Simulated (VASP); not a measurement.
# Valence-band splitting and top-band hole masses of BP under uniaxial [111] strain, r2SCAN with spin-orbit coupling on LDA cells

A p-type channel in BP profits from strain if the strain puts a light hole band on top and moves the next band far enough away that few holes occupy it. I therefore want both the splitting of the upper valence levels and the mass of the top band, for compression and for tension along [111]. The levels are calculated with r2SCAN and spin-orbit coupling on cells relaxed in LDA with no stress across the axis. They are given as depths below the valence-band top at the zone centre of the same cell, so a larger number means a deeper level. The masses are those of the top band at the zone centre, along and across the strain axis.

## How the numbers were made

The start is a typed prototype cell. The crystal was relaxed with LDA. Strain is imposed along [111]; the strain across the axis is adjusted until the stress across it vanishes, and the atoms are relaxed with LDA. VASP 6.6.1, plane waves with PAW, cutoff 480 eV, no spin polarisation. Band edges are single points at r2SCAN with spin-orbit coupling on these cells, k mesh 9×9×9, read on short lines of k points at the zone centre and through the valleys; energies are counted from the valence-band top at the zone centre. Each level is the mean of a Kramers pair; masses are fitted within 0.05 1/Å of the zone centre and are rough where two bands nearly touch. All levels use the PAW data sets made with LDA.

Notes on method and selection:

- Runs that did not converge, have known faults or may not be shown are not listed, and runs on Ansatz's PAW sets soft_1 and soft_2 are kept to separate tables.

Columns:

- strain (%): strain along the axis (tension positive).
- second level (eV): second valence level below the top at Γ.
- third level (eV): third valence level below the top at Γ.
- mass, axis (mₑ): mass of the top hole band along the axis.
- mass, across (mₑ): mass of the top hole band across the axis.

## Results

| member | sign of the strain | strain (%) | second level (eV) | third level (eV) | mass, axis (mₑ) | mass, across (mₑ) |
| --- | --- | --- | --- | --- | --- | --- |
| −2 % | compression | −2.0 | 0.2182 | 0.246 | 0.142 | 0.493 |
| −1.5 % | compression | −1.5 | 0.1596 | 0.188 | 0.138 | 0.512 |
| −1 % | compression | −1.0 | 0.1020 | 0.132 | 0.135 | 0.533 |
| −0.5 % | compression | −0.5 | 0.0450 | 0.077 | 0.129 | 0.527 |
| 0 % | compression | 0.0 | 0.0000 | 0.041 | 0.611 | 0.564 |
| 0 % | tension | 0.0 | 0.0000 | 0.041 | 0.611 | 0.564 |
| +0.5 % | tension | 0.5 | 0.0192 | 0.073 | 0.629 | 0.219 |
| +1 % | tension | 1.0 | 0.0235 | 0.123 | 0.628 | 0.217 |
| +1.5 % | tension | 1.5 | ? | ? | ? | ? |
| +2 % | tension | 2.0 | 0.0256 | 0.220 | 0.650 | 0.218 |

Cells marked ? are withheld until the estimate has been made.

third level (eV) against strain (%), members shown:

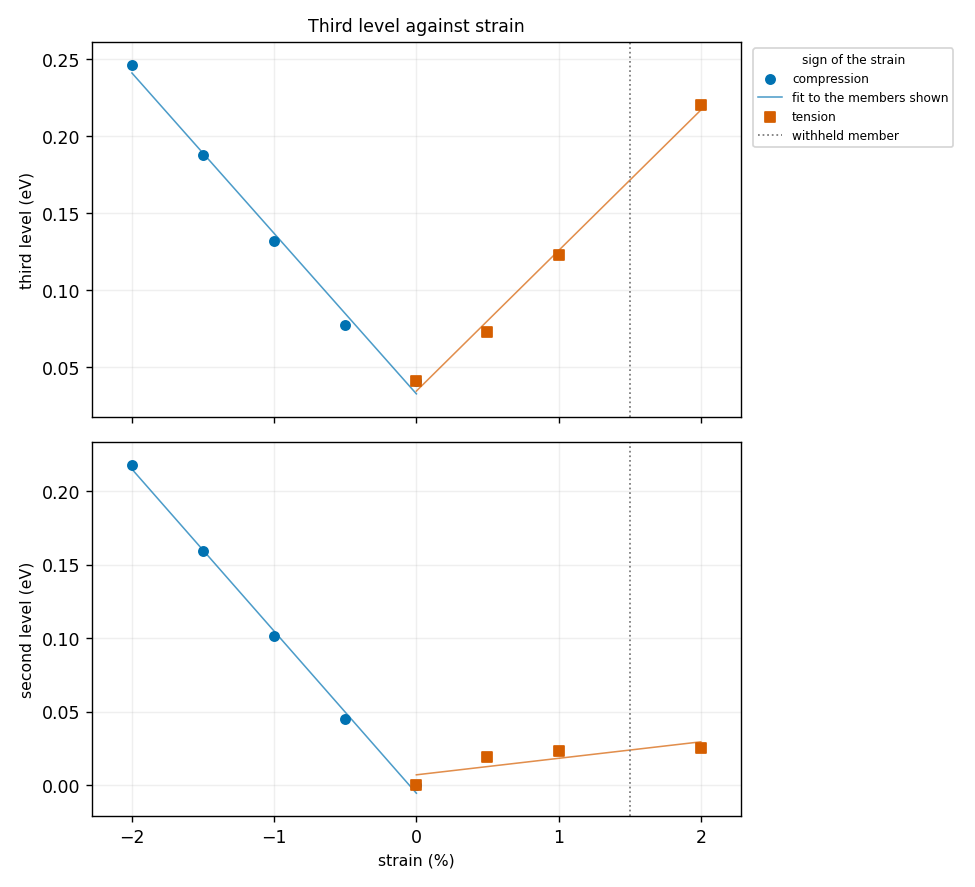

Least-squares fits to the members shown, with x = strain (%); R² and errors in the fitted variable (y, or ln y where the fit is in ln y):

| y | sign of the strain | members | fit | R² | rms residual | leave-one-out rms | the same for the mean of the others |
| --- | --- | --- | --- | --- | --- | --- | --- |
| third level (eV) | compression | 5 | y = 0.03260 − 0.1042 x | 0.99 | 0.0060 | 0.012 | 0.092 |
| third level (eV) | tension | 4 | y = 0.03440 + 0.09126 x | 0.99 | 0.0052 | 0.013 | 0.090 |
| second level (eV) | compression | 5 | y = −0.005240 − 0.1102 x | 1.00 | 0.0037 | 0.0076 | 0.098 |
| second level (eV) | tension | 4 | y = 0.007260 + 0.01122 x | 0.67 | 0.0058 | 0.016 | 0.013 (fit no better) |

## Why the values move as they do

Without strain the two upper levels coincide by symmetry, and the third lies 0.041 eV lower through spin-orbit coupling alone. Strain along [111] adds a second splitting, between the p orbital that points along the axis and the two that lie across it.

Under compression the axial orbital supplies the top level. The second level then drops by (0.2182 − 0.0450) / 1.5 = 0.115 eV per % between −0.5 % and −2 %, and the third goes down with it. These two come mainly from the transverse orbitals, which spin-orbit coupling holds apart by about two thirds of its full splitting, 2 × 0.041 / 3 = 0.027 eV; at −2 % the table gives 0.246 − 0.2182 = 0.028 eV.

Under tension the order is reversed. The transverse pair is on top, so the second level stays close, at 0.0256 eV for +2 %, while the third, now mainly axial, moves away. A straight line describes the second level badly here because most of its shift has already happened by +0.5 %.

The masses follow the same exchange. A p orbital disperses strongly along its own direction and weakly across it, so the top band under compression is light along the axis (0.129 to 0.142 mₑ) and heavy across it (0.493 to 0.533 mₑ). Under tension it is heavy along the axis (0.628 to 0.650 mₑ) and lighter across it (0.217 to 0.219 mₑ). From −2 % to +2 % the axial mass grows by a factor 0.650 / 0.142 = 4.6, and the transverse mass falls by 0.493 / 0.218 = 2.3.

For transport along the axis I would choose compression. At −1 % the second level is already 0.102 eV down, several times the thermal energy at room temperature (roughly 0.026 eV), whereas under tension the second band remains within reach of thermal holes. The LDA cells are somewhat compressed for r2SCAN, which may shift the masses a little.

## A prediction

Plain estimates from the members shown:

- +1.5 % (tension), fit at x = 1.5: 0.171 eV
- +1.5 % (tension), straight-line interpolation between +1 % and +2 %: w = (1.5 − 1.0) / (2.0 − 1.0) = 0.500, so 0.123 + 0.500 × (0.220 − 0.123) = 0.171 eV

For the third level at +1.5 % I use the two-splitting model rather than the fit over all tensile rows, because spin-orbit coupling bends the level near zero strain. With Δ = 0.041 eV for the spin-orbit splitting and δ for the strain splitting of the p orbitals, the third level under tension lies at (Δ + δ)/2 + √[((Δ + δ)/2)² − 2Δδ/3], and the second and third depths add up to Δ + δ.

The neighbours give δ = 0.0235 + 0.123 − 0.041 = 0.1055 eV at +1 % and 0.0256 + 0.220 − 0.041 = 0.2046 eV at +2 %. Their midpoint is (0.1055 + 0.2046) / 2 = 0.1551 eV, and half of Δ + δ is (0.041 + 0.1551) / 2 = 0.0981 eV. The third level is then 0.0981 + √(0.0981² − 2 × 0.041 × 0.1551 / 3) = 0.171 eV. This agrees with the straight line between the neighbours, so the bending no longer matters at this strain.

I tried the route on +1 %, with δ interpolated between 0.0512 eV at +0.5 % and 0.2046 eV at +2 %. There δ is 0.0512 + (0.2046 − 0.0512) / 3 = 0.1023 eV and half of Δ + δ is (0.041 + 0.1023) / 2 = 0.0717 eV. The third level comes out at 0.0717 + √(0.0717² − 2 × 0.041 × 0.1023 / 3) = 0.120 eV against the tabulated 0.123 eV, a miss of 0.003 eV over an interval of 1.5 %. The present interval is 1.0 %, and scaling the miss with the interval gives 0.003 × 1.0 / 1.5 = 0.002 eV, which I take as one standard deviation.

**Committed estimate, +1.5 % (tension): third level = 0.171 ± 0.002 eV.**

## How the estimate fared

| member | sign of the strain | strain (%) | second level (eV) | third level (eV) | mass, axis (mₑ) | mass, across (mₑ) |
| --- | --- | --- | --- | --- | --- | --- |
| +1.5 % | tension | 1.5 | 0.0248 | 0.172 | 0.642 | 0.218 |

| member | estimate | third level (eV) | computed | estimate − computed | miss in error bars |
| --- | --- | --- | --- | --- | --- |
| +1.5 % (tension) | committed | 0.171 | 0.172 | −0.001 | 0.5 |
| +1.5 % (tension) | fit | 0.171 | 0.172 | −0.001 |  |
| +1.5 % (tension) | interpolation | 0.171 | 0.172 | −0.001 |  |

third level (eV) against strain (%):

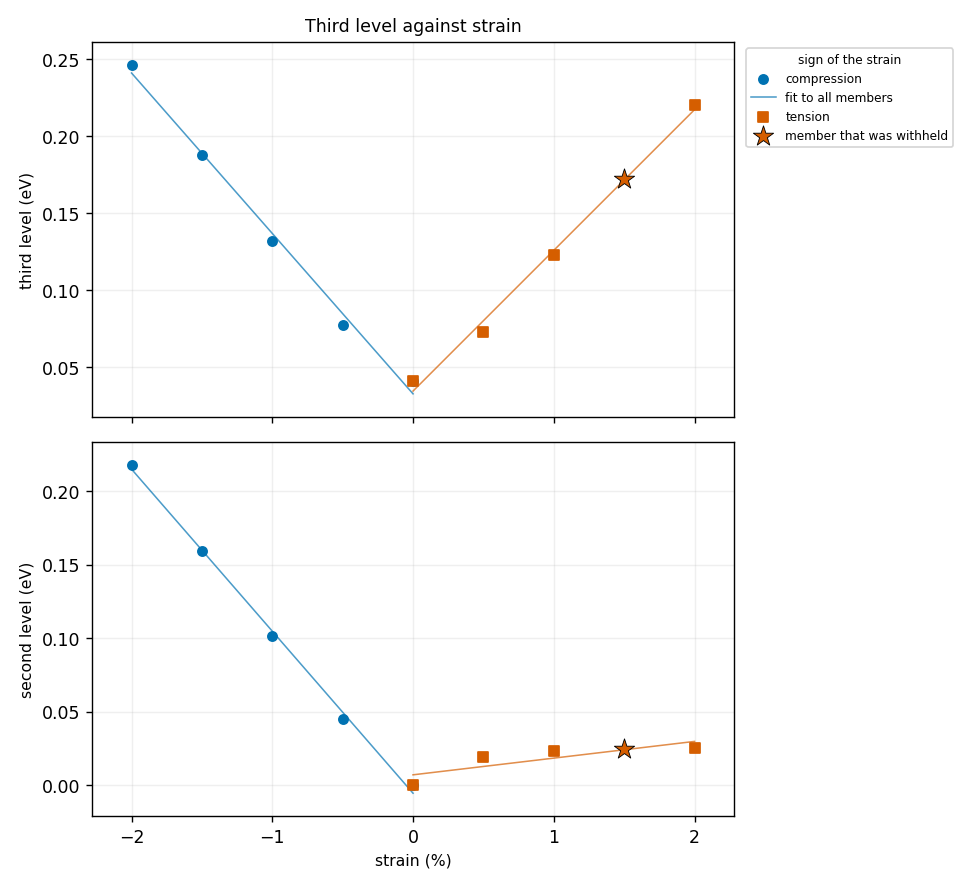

The third level at +1.5 % is 0.172 eV below the valence-band top, 0.001 eV deeper than my 0.171 eV and inside the error bar of 0.002 eV. The fit and the straight line between the neighbours gave the same 0.171 eV, so the two-splitting model brought no gain in accuracy for this level. The fit did well here because its line crosses the curved series between +1 % and +2 %.

The model also passes a second, milder test, on a number I had not set out to predict. With the same δ = 0.1551 eV it puts the second level at 0.041 + 0.1551 − 0.171 = 0.025 eV, and the table gives 0.0248 eV. A straight line between the neighbours does as well, with (0.0235 + 0.0256) / 2 = 0.025 eV. The result is consistent with the picture of a transverse pair at the top, split by spin-orbit coupling, with the mainly axial level moving away under tension.

## Where the trend breaks

Least-squares fits to the whole series, with x = strain (%); R² and errors in the fitted variable (y, or ln y where the fit is in ln y):

| y | sign of the strain | members | fit | R² | rms residual | leave-one-out rms | the same for the mean of the others |
| --- | --- | --- | --- | --- | --- | --- | --- |
| third level (eV) | compression | 5 | y = 0.03260 − 0.1042 x | 0.99 | 0.0060 | 0.012 | 0.092 |
| third level (eV) | tension | 5 | y = 0.03440 + 0.09140 x | 0.99 | 0.0047 | 0.0093 | 0.081 |
| second level (eV) | compression | 5 | y = −0.005240 − 0.1102 x | 1.00 | 0.0037 | 0.0076 | 0.098 |
| second level (eV) | tension | 5 | y = 0.007260 + 0.01136 x | 0.70 | 0.0052 | 0.011 | 0.012 |

Largest departures from the fit to the whole series:

| member | sign of the strain | third level (eV) | fit | computed − fit | in rms residuals |
| --- | --- | --- | --- | --- | --- |
| +0.5 % | tension | 0.073 | 0.080 | −0.007 | 1.5 |
| 0 % | tension | 0.041 | 0.034 | +0.007 | 1.4 |
| 0 % | compression | 0.041 | 0.033 | +0.008 | 1.4 |
| −0.5 % | compression | 0.077 | 0.085 | −0.008 | 1.3 |

The largest departures are at zero strain and at ±0.5 %, and they come from fitting a straight line to a bent series. The unstrained level lies 0.007 to 0.008 eV deeper than the two lines, and the levels at ±0.5 % lie 0.007 to 0.008 eV shallower.

Both signs follow from the competition between the two splittings. Near zero strain, spin-orbit coupling mixes the axial and transverse orbitals, and the third level responds weakly to strain. Once the strain splitting dominates, the level follows it almost fully. Under tension the slope is (0.073 − 0.041) / 0.5 = 0.064 eV per % in the first step and (0.220 − 0.172) / 0.5 = 0.096 eV per % in the last. Under compression it rises likewise, from (0.077 − 0.041) / 0.5 = 0.072 eV per % to (0.246 − 0.188) / 0.5 = 0.116 eV per %. I see no reason to suspect any of these four rows.

## What to take away

Between −2 % and +2 %, the sign of the strain decides which mass is light, and from ±0.5 % on its size matters little. Interpolation over a 1 % gap on the tensile side found the third level to 0.001 eV; near zero strain the bend needs the two-splitting model. At +0.5 %, for instance, a straight line between 0 % and +1 % gives (0.041 + 0.123) / 2 = 0.082 eV, whereas the model with δ = 0.1055 / 2 = 0.0528 eV, for which half of Δ + δ is (0.041 + 0.0528) / 2 = 0.0469 eV, gives 0.0469 + √(0.0469² − 2 × 0.041 × 0.0528 / 3) = 0.074 eV, close to the tabulated 0.073 eV.

With a thermal energy of roughly 0.026 eV, the Boltzmann factor of the second level at the zone centre is exp(−0.102 / 0.026) = 0.02 at −1 %, but exp(−0.0235 / 0.026) = 0.41 at +1 %. Compression therefore isolates the top band far better.

The light transverse mass under tension may hold only close to the zone centre. With ħ²/2mₑ of roughly 3.8 eV Å², it would put the band 3.8 × 0.05² / 0.218 = 0.044 eV down at 0.05 1/Å, below the zone-centre position of the second level. There the difference in dispersion between the two transverse orbitals is no longer small against their spin-orbit splitting, so the top band should turn towards the heavier of the two.

I expect no omitted effect to rival the 0.2 eV range of the splittings. Coupling to lattice vibrations should raise the masses by some per cent.
